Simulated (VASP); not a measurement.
# Bulk modulus and pressure derivative of zinc-blende GaSb from stress and from energy at PBE+D3(BJ)

Gallium and antimony differ little in electronegativity, so GaSb is held together by four nearly covalent bonds per atom. These bonds are long, which makes the crystal soft for a III–V semiconductor.

Our brief is an infrared filter of GaSb, tuned by squeezing it in a hydrostatic cell. We require a volume reduction of at least 3 % at a load of no more than 3 GPa; both limits are our own choice. The reduction is counted from the fitted zero-pressure volume, 28.8597 Å³ per atom, and compression is positive. The load follows from the bulk modulus $B_0$ and its pressure derivative $B_0'$, which we obtain in two ways: from the stress tensor and from the total energy, both against Eulerian strain $f$. No measured equation of state is compared here.

## How the numbers were made

One crystal, GaSb (zinc-blende) (known phase), at PBE+D3(BJ): single-point runs on uniformly scaled copies of a cell relaxed at PBE+D3(BJ); symmetry fixes shape and positions. Program: VASP 6.6.1, plane waves and PAW (data sets made for PBE of release 64), scalar-relativistic without spin-orbit coupling, no spin polarisation. Cutoff 400 eV; on the k meshes the divisions times the cell-vector length are 25 Å or more. Occupations: Gaussian smearing of 0.05 eV.

Notes on method and selection:

- Third-order Birch-Murnaghan: P = 3·B0·f·(1 + 2f)^(5/2)·[1 + (3/2)(B0′ − 4)·f]. The fit to the energies of these runs gives B0 = 48.3 GPa and B0′ = 4.75.
- Static lattice. The pressure from the stress tensor and the slope of the energy need not agree exactly at a finite cutoff and mesh.
- D3(BJ) is an atom-based dispersion correction added to the functional.
- A measured value is attached only where its sources agree among themselves; tables made before the last selection also left out values far from the computed one, as likely another phase or mode.
- Series whose points a third-order Birch-Murnaghan form does not fit, or whose B0′ lies outside 2 to 8, were left out.
- Crystals whose pressure at the fitted V0 departs from zero by more than 0.6 % of B0 plus 0.1 GPa, and layered compounds, were left out.
- Runs that did not converge, have known faults or may not be shown are not listed, and runs on Ansatz's PAW sets soft_1 and soft_2 are kept to separate tables.

Columns:

- Eulerian strain: Eulerian strain f = ½[(V0/V)^(2/3) − 1] with the fitted V0 = 28.8597 Å³ per atom, compression positive.
- fitted bulk modulus (GPa): bulk modulus at that volume from the third-order Birch-Murnaghan fit to the energies.
- volume (Å³): volume per atom.
- pressure (GPa): pressure from the stress tensor, compression positive.
- energy (meV/atom): energy per atom above the lowest point, extrapolated to zero smearing.

Input lines of one member:

```
PREC = Accurate
ENCUT = 400
EDIFF = 1E-06
NELM = 100
ISMEAR = 0
SIGMA = 0.05
LREAL = .FALSE.
ALGO = Normal
GGA = PE
IVDW = 12
NBANDS = 15
LORBIT = 11
ISIF = 2
```

Command (options for logging and memory left out): `vasp_std`

## Data

| member | Eulerian strain | fitted bulk modulus (GPa) | volume (Å³) | pressure (GPa) | energy (meV/atom) |
| --- | --- | --- | --- | --- | --- |
| V = 30.534 Å³ | −0.01845 | 36.6 | 30.5337 | −2.58 | 13.03 |
| V = 29.958 Å³ | −0.01229 | 40.3 | 29.9576 | −1.81 | 5.64 |
| V = 29.381 Å³ | −0.00594 | 44.3 | 29.3815 | −0.96 | 1.19 |
| V = 28.805 Å³ | 0.00063 | 48.7 | 28.8054 | −0.02 | 0.00 |
| V = 28.229 Å³ | 0.00742 | 53.5 | 28.2293 | 0.92 | 2.06 |
| V = 27.653 Å³ | 0.01444 | 58.9 | 27.6532 | 2.12 | 7.98 |
| V = 27.077 Å³ | 0.02171 | 64.7 | 27.0771 | 3.48 | 18.65 |

pressure (GPa) against Eulerian strain:

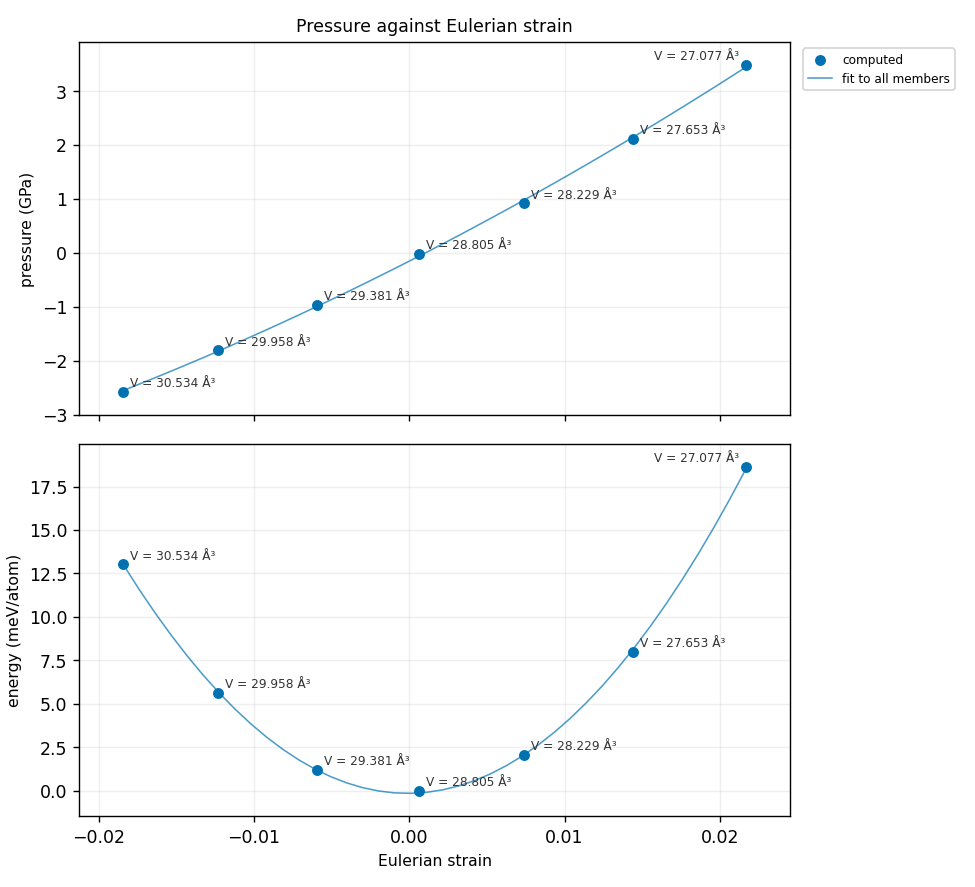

Least-squares fits to the whole series, with x = Eulerian strain; R² and errors in the fitted variable (y, or ln y where the fit is in ln y):

| y | members | fit | R² | rms residual | leave-one-out rms | the same for the mean of the others |
| --- | --- | --- | --- | --- | --- | --- |
| pressure (GPa) | 7 | y = −0.1536 + 146.6 x + 890.1 x² | 1.00 | 0.036 | 0.083 | 2.3 |
| energy (meV/atom) | 7 | y = −0.1517 + 9.088 x + 39260 x² | 1.00 | 0.095 | 0.22 | 7.4 |

## Why the values move as they do

The pressures give $B_0$ = 48.9 GPa and $B_0'$ = 4.71; the energies give 48.3 GPa and 4.75. For small strain the third-order Birch-Murnaghan form becomes

$$P \approx 3B_0 f + 3B_0\left[5 + \tfrac{3}{2}(B_0' - 4)\right]f^2 .$$

The quadratic fit to the pressures therefore yields 146.6 / 3 = 48.9 GPa. The ratio of its coefficients is 890.1 / 146.6 = 6.07, so that $B_0'$ = 4 + (6.07 − 5) / 1.5 = 4.71. The scatter about this fit leaves an uncertainty of roughly 0.5 GPa in $B_0$ and roughly 0.5 in $B_0'$. The two bulk moduli differ by 48.9 − 48.3 = 0.6 GPa, about as much as that uncertainty, and the two derivatives agree more closely than the data can guarantee.

The positive curvature has a simple origin. As the bonds shorten, the repulsion between overlapping closed shells and the kinetic energy of the valence electrons rise faster than the attraction, so each further step of compression costs more pressure. The fitted modulus grows from 36.6 to 64.7 GPa across the series, a factor of 64.7 / 36.6 = 1.77.

The routes differ more plainly in their zero. At the volume where the fitted energy is lowest, the fit to the stress gives −0.15 GPa instead of nothing. A finite plane-wave basis produces an error of this sign: the stress is evaluated for a fixed set of waves, whose effective cutoff falls as the cell expands. The energy then appears to rise too quickly on expansion, and the pressure comes out too low. A constant offset of this kind leaves the slope at a given volume, and hence $B_0$ there, unchanged.

## Outliers

Largest departures from the fit to the whole series:

| member | pressure (GPa) | fit | computed − fit | in rms residuals |
| --- | --- | --- | --- | --- |
| V = 28.229 Å³ | 0.92 | 0.98 | −0.06 | 1.7 |
| V = 28.805 Å³ | −0.02 | −0.06 | +0.04 | 1.1 |
| V = 29.381 Å³ | −0.96 | −0.99 | +0.03 | 0.9 |
| V = 27.077 Å³ | 3.48 | 3.45 | +0.03 | 0.9 |

The rows at 28.805 and 28.229 Å³ depart from the pressure fit by +0.04 and −0.06 GPa. Successive equal volume steps raise the pressure by 0.77, 0.85, 0.94, 0.94, 1.2 and 1.4 GPa, so the fourth step is about 0.1 GPa too small.

It is the step across which the gap at Γ opens in this calculation. The late opening is an error of the functional, which makes gaps too small: real GaSb is a semiconductor already at zero pressure. On the expanded side, electrons at Γ occupy an antibonding s state that falls in energy on expansion, which adds pressure; compression empties it. With about 200 k points, two electrons, a gap deformation potential of roughly 8 eV and two atoms per cell, the change is at most about 2 × 8 / (200 × 2 × 28.8) × 160.2 = 0.22 GPa, where 160.2 turns eV/Å³ into GPa. Both sign and size fit.

The individual pressures are usable, but a modulus taken from these two rows alone is not: with the mean of their volumes it gives 0.94 / (28.8054 − 28.2293) × (28.8054 + 28.2293) / 2 = 46.5 GPa, where the energy fit has about 51 GPa.

## Choosing a member

The three expanded rows fail the brief at once, and the row at 28.805 Å³ is compressed by only 0.2 %. For the other three, the volume reduction is $1 - V/V_0$:

- 28.229 Å³: (28.8597 − 28.2293) / 28.8597 = 2.18 %, at a stress pressure of 0.92 GPa. The reduction is too small.
- 27.653 Å³: (28.8597 − 27.6532) / 28.8597 = 4.18 %, at 2.12 GPa. Both limits are met.
- 27.077 Å³: (28.8597 − 27.0771) / 28.8597 = 6.18 %, at 3.48 GPa. The load is too high.

**The pick is 27.653 Å³.** The energy route gives its load without the offset of the stress:

$$P = 3B_0 f(1+2f)^{5/2}\left[1+\tfrac{3}{2}(B_0'-4)f\right]$$

With $B_0$ = 48.3 GPa, $B_0'$ = 4.75 and $f$ = 0.01444 this is about 2.3 GPa. Adding the offset back to the stress value gives 2.12 + 0.15 = 2.27 GPa, in agreement.

The designer of the cell also needs the stored elastic energy per volume of uncompressed crystal. Since 1 meV/Å³ is 160.2 J/cm³, it is 7.98 / 28.8597 × 160.2 = 44 J/cm³.

Functionals of this kind usually make such semiconductors too soft, by roughly 10 %. Carried through, the load becomes 2.3 × 1.1 = 2.5 GPa and the stored energy 44 × 1.1 = 48 J/cm³. The pick still meets the brief.

The runner-up is 27.077 Å³, which has twice the required reduction but needs a cell rated for about 4 GPa once the same allowance is made.

The pick would fall if the crystal were stiffer than calculated by more than 3 / 2.3 = 1.3, that is by about 30 %. The choice of reference volume matters less: counted from the volume at which the fitted stress vanishes, the reduction is roughly 3.9 % instead of 4.18 %, still above the limit.

## Summary

Between about −2.6 and 3.5 GPa, a bulk modulus of 48 to 49 GPa and a derivative near 4.7 describe the static crystal at this level. Both routes average over the change of occupation at Γ, so their agreement does not exclude a shared error of 1 to 3 GPa; a denser k mesh would reduce it.

Two effects are left out. Lattice vibrations at room temperature lower the modulus by roughly 1 to 2 GPa, more than the 0.6 GPa between the routes. Spin-orbit coupling narrows the gap by roughly 0.2 eV, which would move its opening to stronger compression.

[Logs are printed without paths, hosts, clocks, repeated set-up lines and the standing remarks that a program may print on its own settings, such as how far it seeks lower states.]
